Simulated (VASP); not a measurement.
# Pressure, band gap and energy of rock-salt CaO within about 6 % of its equilibrium volume, r2SCAN + rVV10

Before the gap of CaO or its response to pressure is calculated, it has to be decided how closely the cell volume must be fixed, and whether a relaxation driven by the stress alone will do. The choice matters for CaO as an insulating oxide layer and as a component of minerals under pressure, where the volume departs from that of the free crystal. Seven evenly scaled cells are compared here. Volume changes are measured from the minimum of the Birch-Murnaghan fit, and energies from the lowest row, 13.77 Å³ per atom. Pressure is positive in compression. The gap is the indirect one, from the valence edge at the zone centre to the conduction edge at X.

## Calculations

A cell from a diffraction database, relaxed at this level and then scaled evenly, fractional positions kept. VASP 6.6.1, plane waves with PAW, r2SCAN + rVV10, cutoff 520 eV, k mesh 10×10×10, no spin polarisation, no spin-orbit coupling, static lattice. A Birch-Murnaghan fit to the energies has its minimum at 13.80 Å³ per atom.

Notes on method and selection:

- The pressure is that of a finite plane-wave basis, so it need not vanish exactly at the minimum of the energy.
- Only series whose fit has its minimum inside the range and an error under 0.5 meV per atom are shown.
- Where rows or columns differ in functional or spin-orbit coupling, non-spherical gradient terms in the PAW spheres (LASPH) may be on in some and off in others.
- Runs that did not converge, have known faults or may not be shown are not listed, and runs on Ansatz's PAW sets soft_1 and soft_2 are kept to separate tables.

Columns:

- volume change (%): volume relative to the fitted equilibrium volume.
- pressure (GPa): pressure from the stress tensor (positive: compressed).
- energy (meV/atom): energy per atom above the lowest point of the series.
- gap (eV): smallest gap on the k mesh.

Input lines of one member:

```
PREC = Accurate
ENCUT = 520
EDIFF = 1E-06
NELM = 100
ISMEAR = 0
SIGMA = 0.05
LREAL = .FALSE.
ALGO = Normal
METAGGA = R2SCAN
LUSE_VDW = .TRUE.
IVDW_NL = 2
BPARAM = 11.95
CPARAM = 0.0093
LASPH = .TRUE.
NBANDS = 14
```

Command (options for logging and memory left out): `mpirun -np 2 vasp_std`

## Table of results

```
member    volume change (%)  pressure (GPa)  energy (meV/atom)  gap (eV)
12.95 Å³  −6.20              8.49            22.11              4.121
13.22 Å³  −4.20              5.34            9.77               4.133
13.50 Å³  −2.21              2.51            2.57               4.143
13.77 Å³  −0.21              −0.02           0.00               4.151
14.05 Å³  1.78               −2.30           1.55               4.156
14.32 Å³  3.78               −4.35           6.83               4.159
14.60 Å³  5.77               −6.19           15.47              4.161
```

pressure (GPa) against volume change (%):

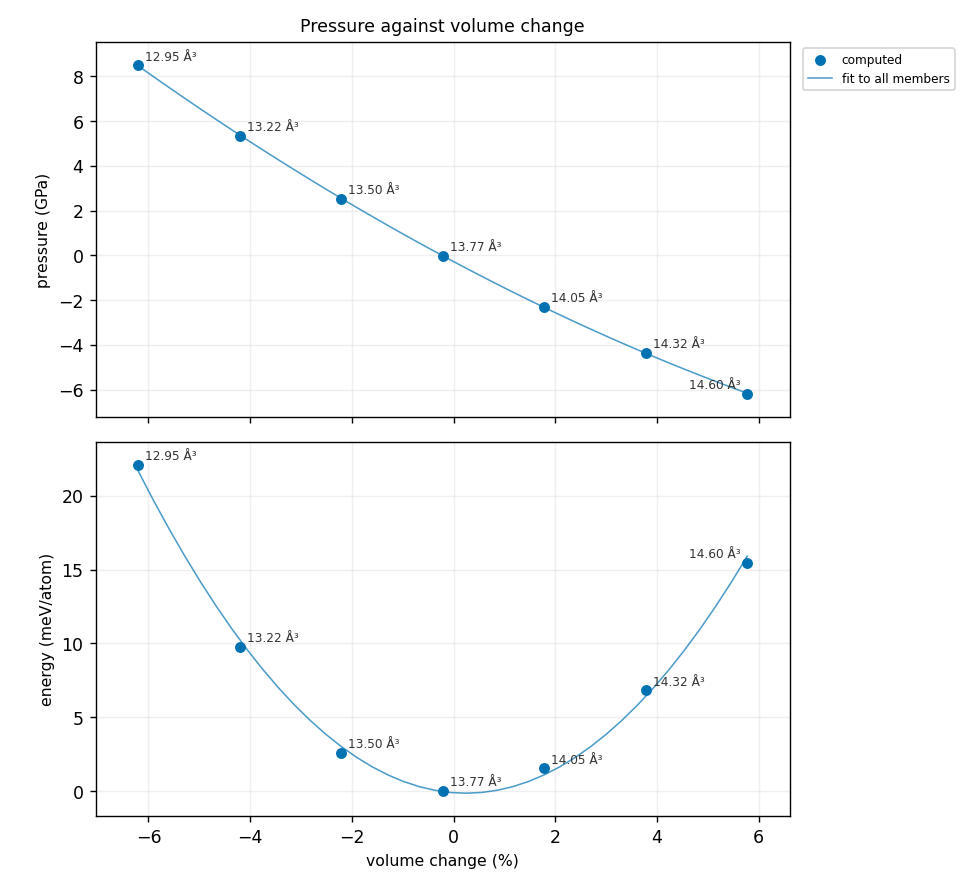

Least-squares fits to the whole series, with x = volume change (%); R² and errors in the fitted variable (y, or ln y where the fit is in ln y):

```
y                  members  fit                                    R²    rms residual  leave-one-out rms  the same for the mean of the others
pressure (GPa)     7        y = −0.28165 − 1.2075 x + 0.032681 x²  1.00  0.028         0.073              5.7
energy (meV/atom)  7        y = −0.1087 − 0.2559 x + 0.5251 x²     1.00  0.41          1.1                8.7
```

## What drives the series

Pressure falls from row to row as the cell grows, and ever more slowly. Between the two smallest cells it drops by (8.49 − 5.34) / 2.00 = 1.58 GPa per % of volume, between the two largest by (6.19 − 4.35) / 1.99 = 0.92 GPa per %. Closed-shell repulsion between neighbouring ions rises steeply as they approach, while the Coulomb attraction changes more gently, so the crystal stiffens in compression and softens in expansion.

Around equilibrium the slope is (2.51 + 2.30) / (1.78 + 2.21) = 1.21 GPa per %, a bulk modulus $B$ of about 100 × 1.21 = 121 GPa. The energy follows from it through

$$\Delta E \approx \tfrac{1}{2} B V_0 \left(\Delta V / V_0\right)^2 .$$

For a change of 1 % this gives 0.5 × 121 × 13.80 × 0.0001 = 0.083 GPa Å³, or about 0.52 meV per atom, close to the quadratic coefficient of 0.5251 in the energy fit. Stress and energy thus agree on the stiffness.

They differ slightly on the zero. At the energy minimum the pressure fit gives −0.28 GPa. The stress is evaluated with a fixed set of plane waves and misses the energy gained when a larger cell admits more waves below the same cutoff, so the pressure comes out too low.

The gap widens at every step, but only from 4.121 to 4.161 eV over the whole series. The rise is 0.012 eV over the first step and 0.002 eV over the last. Band theory suggests two opposing effects. Expansion narrows the oxygen 2p and calcium 3d bands, which moves their facing edges apart; it also weakens the electrostatic potential that separates anion from cation levels, which brings them together. The narrowing would win here, and because orbital overlap decays faster with distance than the Coulomb term, its lead would shrink as the cell grows. The table contains only the net result.

## Outliers

Largest departures from the fit to the whole series:

```
member    pressure (GPa)  fit    computed − fit  in rms residuals
13.50 Å³  2.51            2.55   −0.04           1.3
14.60 Å³  −6.19           −6.16  −0.03           1.1
14.32 Å³  −4.35           −4.38  +0.03           1.1
12.95 Å³  8.49            8.46   +0.03           1.0
```

No row breaks the pressure curve. The largest departure from the quadratic fit is −0.04 GPa, at 13.50 Å³, in a series that spans 14.68 GPa. The departures are nevertheless ordered: positive at 12.95 Å³, negative at 13.50 Å³, positive at 14.32 Å³ and negative again at 14.60 Å³. This is the pattern left by a missing cubic term, since the stiffness itself changes at a varying rate.

The energy shows the same defect more clearly. At 12.95 Å³ the fit gives −0.1087 + 0.2559 × 6.20 + 0.5251 × 6.20² = 21.66 meV per atom, which falls short of the computed value by 22.11 − 21.66 = 0.45. At 14.60 Å³ it gives −0.1087 − 0.2559 × 5.77 + 0.5251 × 5.77² = 15.90 meV per atom, too high by 15.90 − 15.47 = 0.43. A parabola is symmetric about its minimum, whereas the crystal resists compression more than expansion. The fault therefore lies with the fitted form and not with these two cells.

## Using the table

**Which volume corresponds to a pressure of 5 GPa?**

The stress reads about 0.28 GPa too low, so the tabulated pressure to look for is 5 − 0.28 = 4.72 GPa. This lies between the rows at −2.21 % (2.51 GPa) and −4.20 % (5.34 GPa). The fraction of the interval is (4.72 − 2.51) / (5.34 − 2.51) = 0.78, and the volume change is −2.21 − 0.78 × (4.20 − 2.21) = −3.8 %. Without the correction the answer would be −4.0 %.

**How much does the gap change if the lattice constant is 1 % too small?**

A lattice constant 1 % too small means a volume about 3 % too small. Between −0.21 % and −4.20 % the gap falls by 4.151 − 4.133 = 0.018 eV, or 0.018 / (4.20 − 0.21) = 0.0045 eV per %. The change is 3 × 0.0045 = 0.014 eV, about 0.3 % of the gap.

**Is a cell relaxed to nearly zero stress good enough?**

The row at 13.77 Å³ has a pressure of −0.02 GPa and lies 0.21 % below the fitted volume. The energy cost is 0.52 × 0.21² = 0.02 meV per atom. The gap shifts by 0.21 × (4.156 − 4.151) / (1.78 + 0.21) = 0.0005 eV. Such a cell serves well for both. For pressures below about 1 GPa, the offset of 0.28 GPa is too large to ignore.

## Rules of thumb and their limits

Between −6.20 % and +5.77 % of volume, the pressure of CaO is sensitive to the cell and the gap is not: compression from 13.77 to 12.95 Å³ adds 8.51 GPa and removes only 0.030 eV.

The absolute gap is less secure than its change. A semilocal functional such as r2SCAN generally places the gaps of wide-gap oxides too low, so a hybrid functional or a GW calculation would raise all seven values. The static lattice leaves out zero-point motion and heat. Both would enlarge the equilibrium volume and soften the crystal, while the coupling of electrons to lattice vibrations would be expected to lower the gap.

The results apply to even scaling. In a film strained in the plane of a cube face, the three X valleys are no longer equivalent, and their splitting can move the gap in a way that the volume alone does not describe.

[Logs are printed without paths, hosts, clocks, repeated set-up lines and the standing remarks that a program may print on its own settings, such as how far it seeks lower states.]
